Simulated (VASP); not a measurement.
# BAs under uniaxial [111] strain: spin-orbit valence-band splitting at the zone centre and top-hole masses with r2SCAN

Stretching and compressing a cubic crystal along the same axis both lift the degeneracy of its uppermost valence levels, yet the two distortions leave different kinds of hole at the top. In BAs this matters for p-type conduction, because the mass of the uppermost band helps to set how easily holes move along and across the strain axis. The question is how far [111] strain separates the levels, and how the mass changes between compression and tension. The levels are calculated with r2SCAN and spin-orbit coupling on cells relaxed with LDA. They are given as positive depths below the highest valence level at the zone centre, and no measured values are compared here.

## Calculations

The start is a typed prototype cell. The crystal was relaxed with LDA. Strain is imposed along [111]; the strain across the axis is adjusted until the stress across it vanishes, and the atoms are relaxed with LDA. VASP 6.6.1, plane waves with PAW, cutoff 480 eV, no spin polarisation. Band edges are single points at r2SCAN with spin-orbit coupling on these cells, k mesh 9×9×9, read on short lines of k points at the zone centre and through the valleys; energies are counted from the valence-band top at the zone centre. Each level is the mean of a Kramers pair; masses are fitted within 0.05 1/Å of the zone centre and are rough where two bands nearly touch. All levels use the PAW data sets made with LDA.

Notes on method and selection:

- Runs that did not converge, have known faults or may not be shown are not listed, and runs on Ansatz's PAW sets soft_1 and soft_2 are kept to separate tables.

Columns:

- strain (%): strain along the axis (tension positive).
- second level (eV): second valence level below the top at Γ.
- third level (eV): third valence level below the top at Γ.
- mass, axis (mₑ): mass of the top hole band along the axis.
- mass, across (mₑ): mass of the top hole band across the axis.

## Computed values

| member | sign of the strain | strain (%) | second level (eV) | third level (eV) | mass, axis (mₑ) | mass, across (mₑ) |
| --- | --- | --- | --- | --- | --- | --- |
| −2 % | compression | −2.0 | 0.1736 | 0.347 | 0.123 | 0.376 |
| −1.5 % | compression | −1.5 | 0.1246 | 0.305 | 0.123 | 0.376 |
| −1 % | compression | −1.0 | ? | ? | ? | ? |
| −0.5 % | compression | −0.5 | 0.0362 | 0.236 | 0.109 | 0.352 |
| 0 % | compression | 0.0 | 0.0000 | 0.215 | 0.523 | 0.443 |
| 0 % | tension | 0.0 | 0.0000 | 0.215 | 0.523 | 0.443 |
| +0.5 % | tension | 0.5 | 0.0313 | 0.235 | 0.525 | 0.169 |
| +1 % | tension | 1.0 | 0.0540 | 0.258 | 0.539 | 0.169 |
| +1.5 % | tension | 1.5 | 0.0721 | 0.287 | 0.540 | 0.169 |
| +2 % | tension | 2.0 | ? | ? | ? | ? |

Cells marked ? are withheld until the estimate has been made.

third level (eV) against strain (%), members shown:

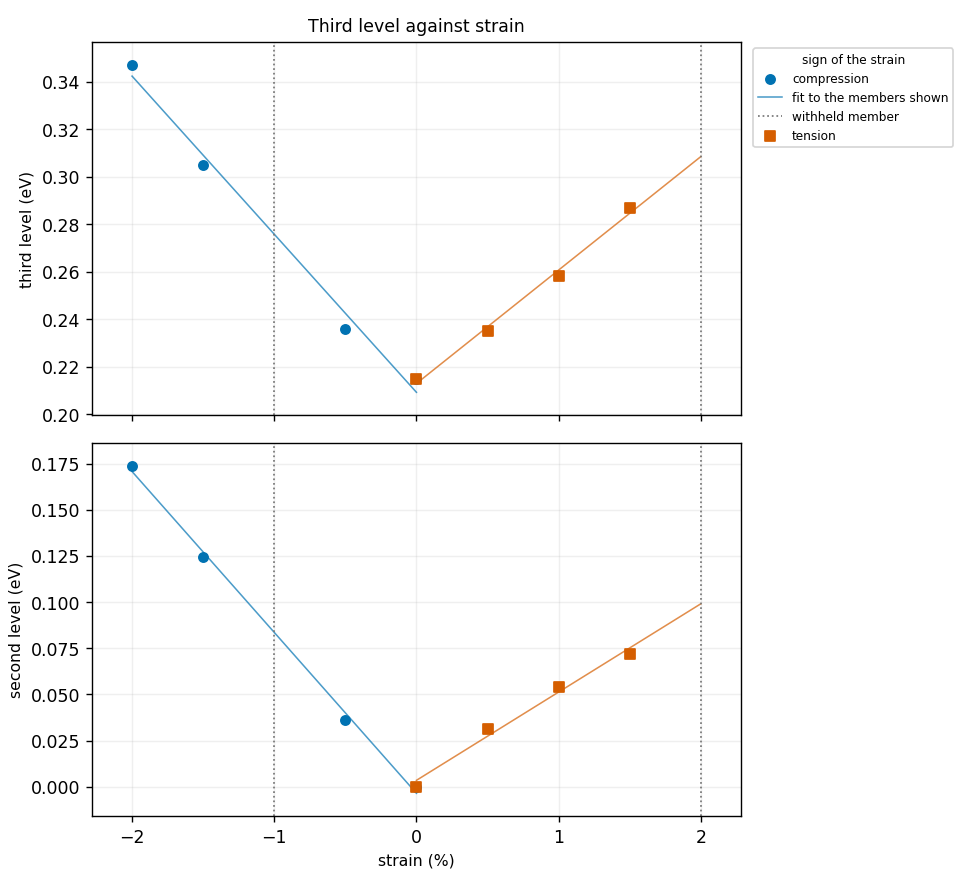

Least-squares fits to the members shown, with x = strain (%); R² and errors in the fitted variable (y, or ln y where the fit is in ln y):

| y | sign of the strain | members | fit | R² | rms residual | leave-one-out rms | the same for the mean of the others |
| --- | --- | --- | --- | --- | --- | --- | --- |
| third level (eV) | compression | 4 | y = 0.2092 − 0.06660 x | 0.99 | 0.0053 | 0.012 | 0.071 |
| third level (eV) | tension | 4 | y = 0.2129 + 0.04780 x | 0.99 | 0.0023 | 0.0058 | 0.036 |
| second level (eV) | compression | 4 | y = −0.003520 − 0.08712 x | 1.00 | 0.0032 | 0.0074 | 0.092 |
| second level (eV) | tension | 4 | y = 0.003500 + 0.04780 x | 0.98 | 0.0033 | 0.0085 | 0.036 |

## Reading the trend

Both signs of strain split the upper pair, but compression does so more strongly. At 1.5 % the second level lies 0.1246 eV below the top in compression and 0.0721 eV in tension, a ratio of 0.1246 / 0.0721 = 1.73. The third level, 0.215 eV deep without strain, also moves down on both sides.

The masses identify the states. Between +1.5 % and −1.5 % the top-hole mass along the axis falls from 0.540 to 0.123 $m_e$, while the mass across it rises from 0.169 to 0.376 $m_e$. In tension the top state is built from p orbitals perpendicular to the axis, which disperse weakly along it. In compression the top state has mainly axial p character and is light along the axis. The change is an exchange of band order, not a gradual change of one mass. The unstrained masses are rough because two bands touch there.

A three-level p model accounts for the asymmetry. With spin-orbit splitting $\Delta = 0.215$ eV and a strain splitting $\delta$, positive in tension, let

$$S=\Delta+\delta,\qquad R=\sqrt{S^2/4-2\Delta\delta/3}.$$

The second and third depths are $S/2-R$ and $S/2+R$ in tension, and $R-S/2$ and $2R$ in compression. Solved for the strain splitting, a third depth $D$ gives $\delta=D(D-\Delta)/(D-2\Delta/3)$ in tension and $\delta=\Delta/3-\sqrt{D^2-8\Delta^2/9}$ in compression. Strain mixes the partly axial state with the split-off state, which pushes the former upwards. In compression this state is already on top, so the upper gap widens; in tension it lies second, so the gap narrows.

The second-level column tests the model. At +1.5 % the third level gives $\delta$ = 0.144 eV, hence a second level at 0.215 + 0.144 − 0.287 = 0.072 eV, as tabulated. At −2 % the third level gives $\delta$ = 0.215 / 3 − √(0.347² − 8 × 0.215² / 9) = −0.210 eV, hence a second level at 0.347 / 2 − (0.215 − 0.210) / 2 = 0.171 eV, against 0.1736 eV in the table.

At the two strongest compressions the true valence maximum lies slightly off the zone centre, so the tabulated depths there are not measured from the absolute band edge.

## Estimating the withheld member

Plain estimates from the members shown:

- −1 % (compression), fit at x = −1.0: 0.276 eV
- −1 % (compression), straight-line interpolation between −1.5 % and −0.5 %: w = (−1.0 − (−1.5)) / (−0.5 − (−1.5)) = 0.500, so 0.305 + 0.500 × (0.236 − 0.305) = 0.270 eV
- +2 % (tension), fit at x = 2.0: 0.308 eV (an extrapolation)

The third level curves downwards in energy on both sides: its depth grows faster as strain increases. A straight line between neighbours therefore gives too large a depth at −1 %, and the linear fit gives too small a depth at +2 %. The better route is to obtain $\delta$ from the tabulated third levels, continue $\delta$ linearly, and return to the level through the three-level formula.

For −1 %, the neighbour at −0.5 % gives $\delta$ = 0.215 / 3 − √(0.236² − 8 × 0.215² / 9) = −0.0492 eV, and that at −1.5 % gives 0.215 / 3 − √(0.305² − 8 × 0.215² / 9) = −0.1562 eV. Their midpoint is (−0.0492 − 0.1562) / 2 = −0.1027 eV. Then $S$ = 0.215 − 0.1027 = 0.1123 eV, and the depth is $2R$ = √(0.1123² + 8 × 0.215 × 0.1027 / 3) = 0.267 eV. This is 0.003 eV below the straight-line interpolation.

For +2 %, the member at +1 % gives $\delta$ = 0.258 × (0.258 − 0.215) / (0.258 − 2 × 0.215 / 3) = 0.09675 eV, and that at +1.5 % gives 0.287 × (0.287 − 0.215) / (0.287 − 2 × 0.215 / 3) = 0.14383 eV. One further equal step gives 2 × 0.14383 − 0.09675 = 0.1909 eV, so $S$ = 0.215 + 0.1909 = 0.4059 eV and $R$ = √(0.4059² / 4 − 2 × 0.215 × 0.1909 / 3) = 0.1176 eV. The depth is 0.4059 / 2 + 0.1176 = 0.321 eV.

Tried on shown members, the route gives 0.305 eV at −1.5 % from −0.5 % and −2 %, against 0.305 eV in the table. At +1.5 %, extrapolation from +0.5 % and +1 % falls about 0.001 eV short of the tabulated 0.287 eV. These misses and the rounding of the inputs support an error of 0.001 eV for the interpolation; 0.002 eV is taken for the extrapolation.

**Committed estimate, −1 % (compression): third level = 0.267 ± 0.001 eV.**  
**Committed estimate, +2 % (tension): third level = 0.321 ± 0.002 eV.**

## The answer

| member | sign of the strain | strain (%) | second level (eV) | third level (eV) | mass, axis (mₑ) | mass, across (mₑ) |
| --- | --- | --- | --- | --- | --- | --- |
| −1 % | compression | −1.0 | 0.0772 | 0.266 | 0.124 | 0.364 |
| +2 % | tension | 2.0 | 0.0854 | 0.319 | 0.553 | 0.171 |

| member | estimate | third level (eV) | computed | estimate − computed | miss in error bars |
| --- | --- | --- | --- | --- | --- |
| −1 % (compression) | committed | 0.267 | 0.266 | +0.001 | 1.0 |
| −1 % (compression) | fit | 0.276 | 0.266 | +0.010 |  |
| −1 % (compression) | interpolation | 0.270 | 0.266 | +0.004 |  |
| +2 % (tension) | committed | 0.321 | 0.319 | +0.002 | 1.0 |
| +2 % (tension) | fit | 0.308 | 0.319 | −0.011 |  |

third level (eV) against strain (%):

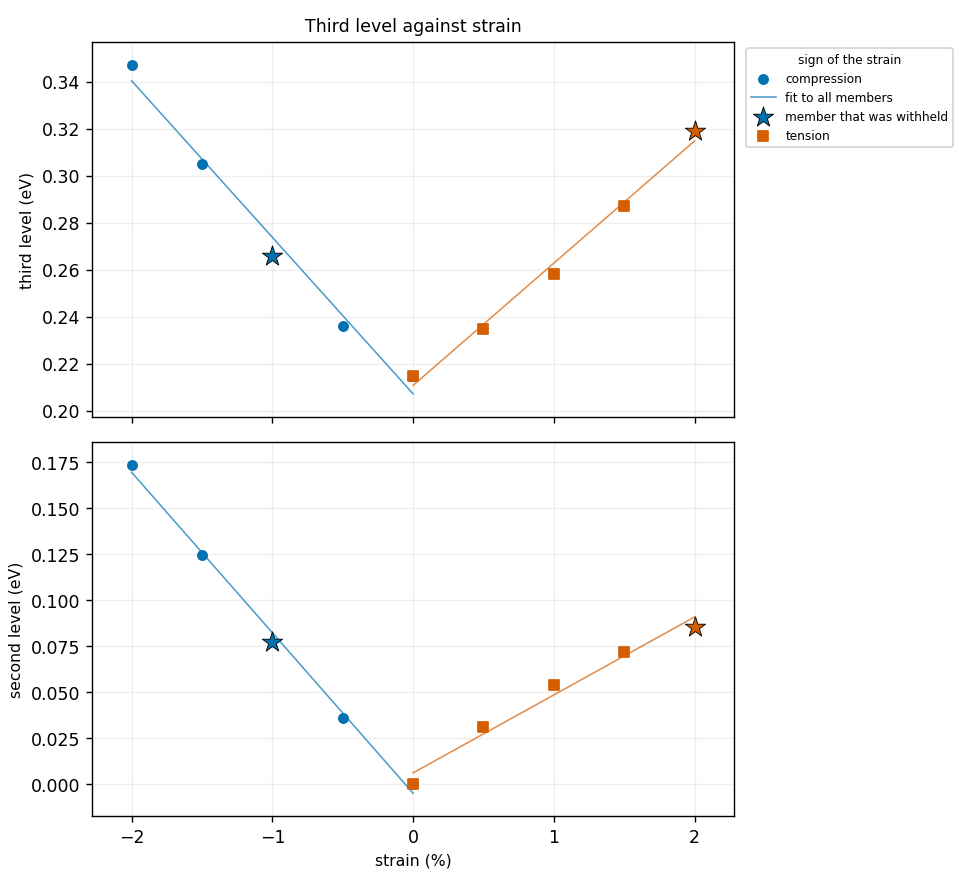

Both estimates came out slightly high and lie at the edge of their error bars: 0.267 against 0.266 eV at −1 %, and 0.321 against 0.319 eV at +2 %. They did better than the linear fits, which missed by +0.010 and −0.011 eV, and at −1 % also better than the straight-line interpolation, which missed by +0.004 eV. The remaining misses are comparable with the effect of rounding in the tabulated levels.

The argument from curvature was right on both sides: the computed depth lies below the straight line between neighbours at −1 % and above the extended fit at +2 %. The second levels, which did not enter the estimates, give a separate check. With the same $\delta$, the three-level model puts them at (0.267 − 0.1123) / 2 = 0.077 eV and 0.4059 / 2 − 0.1176 = 0.085 eV, against computed values of 0.0772 and 0.0854 eV. This supports strain mixing with the split-off state as the cause of the unequal splittings.

## Exceptions

Least-squares fits to the whole series, with x = strain (%); R² and errors in the fitted variable (y, or ln y where the fit is in ln y):

| y | sign of the strain | members | fit | R² | rms residual | leave-one-out rms | the same for the mean of the others |
| --- | --- | --- | --- | --- | --- | --- | --- |
| third level (eV) | compression | 5 | y = 0.2072 − 0.06660 x | 0.98 | 0.0062 | 0.013 | 0.059 |
| third level (eV) | tension | 5 | y = 0.2108 + 0.05200 x | 0.99 | 0.0036 | 0.0073 | 0.046 |
| second level (eV) | compression | 5 | y = −0.004800 − 0.08712 x | 1.00 | 0.0039 | 0.0079 | 0.077 |
| second level (eV) | tension | 5 | y = 0.006240 + 0.04232 x | 0.97 | 0.0049 | 0.010 | 0.038 |

Largest departures from the fit to the whole series:

| member | sign of the strain | third level (eV) | fit | computed − fit | in rms residuals |
| --- | --- | --- | --- | --- | --- |
| +1 % | tension | 0.258 | 0.263 | −0.005 | 1.3 |
| 0 % | compression | 0.215 | 0.207 | +0.008 | 1.3 |
| −1 % | compression | 0.266 | 0.274 | −0.008 | 1.3 |
| +2 % | tension | 0.319 | 0.315 | +0.004 | 1.2 |

None stands out: the largest departures from the two linear fits are 1.3 rms residuals. Their signs follow the curvature, with 0 % in compression (+0.008 eV) and +2 % (+0.004 eV) above their lines, and −1 % (−0.008 eV) and +1 % (−0.005 eV) below. In the three-level model the third depth at first grows by only a third of the change in $|\delta|$ and later by a larger share, which bends the curve in this way.

## Rules of thumb and their limits

Between −2 % and +2 %, $\delta$ is close to 0.10 eV per percent of strain. With $\Delta$ = 0.215 eV, this one constant gives the third level of the eight strained members with a typical miss of 0.005 eV and a largest miss of 0.008 eV; the mean of the other members misses by 0.059 eV in compression and 0.046 eV in tension.

For holes moving along the axis, compression gives the light top band, 0.109 to 0.124 $m_e$, against 0.525 to 0.553 $m_e$ in tension. Across the axis the order is reversed. At ±0.5 % the second level is only 0.03 to 0.04 eV down, comparable with the thermal energy at room temperature, so both bands then carry holes.

r2SCAN tends to make band gaps too small. That error should largely cancel between valence levels, but it may still affect the light masses, which depend on the coupling to the conduction bands.
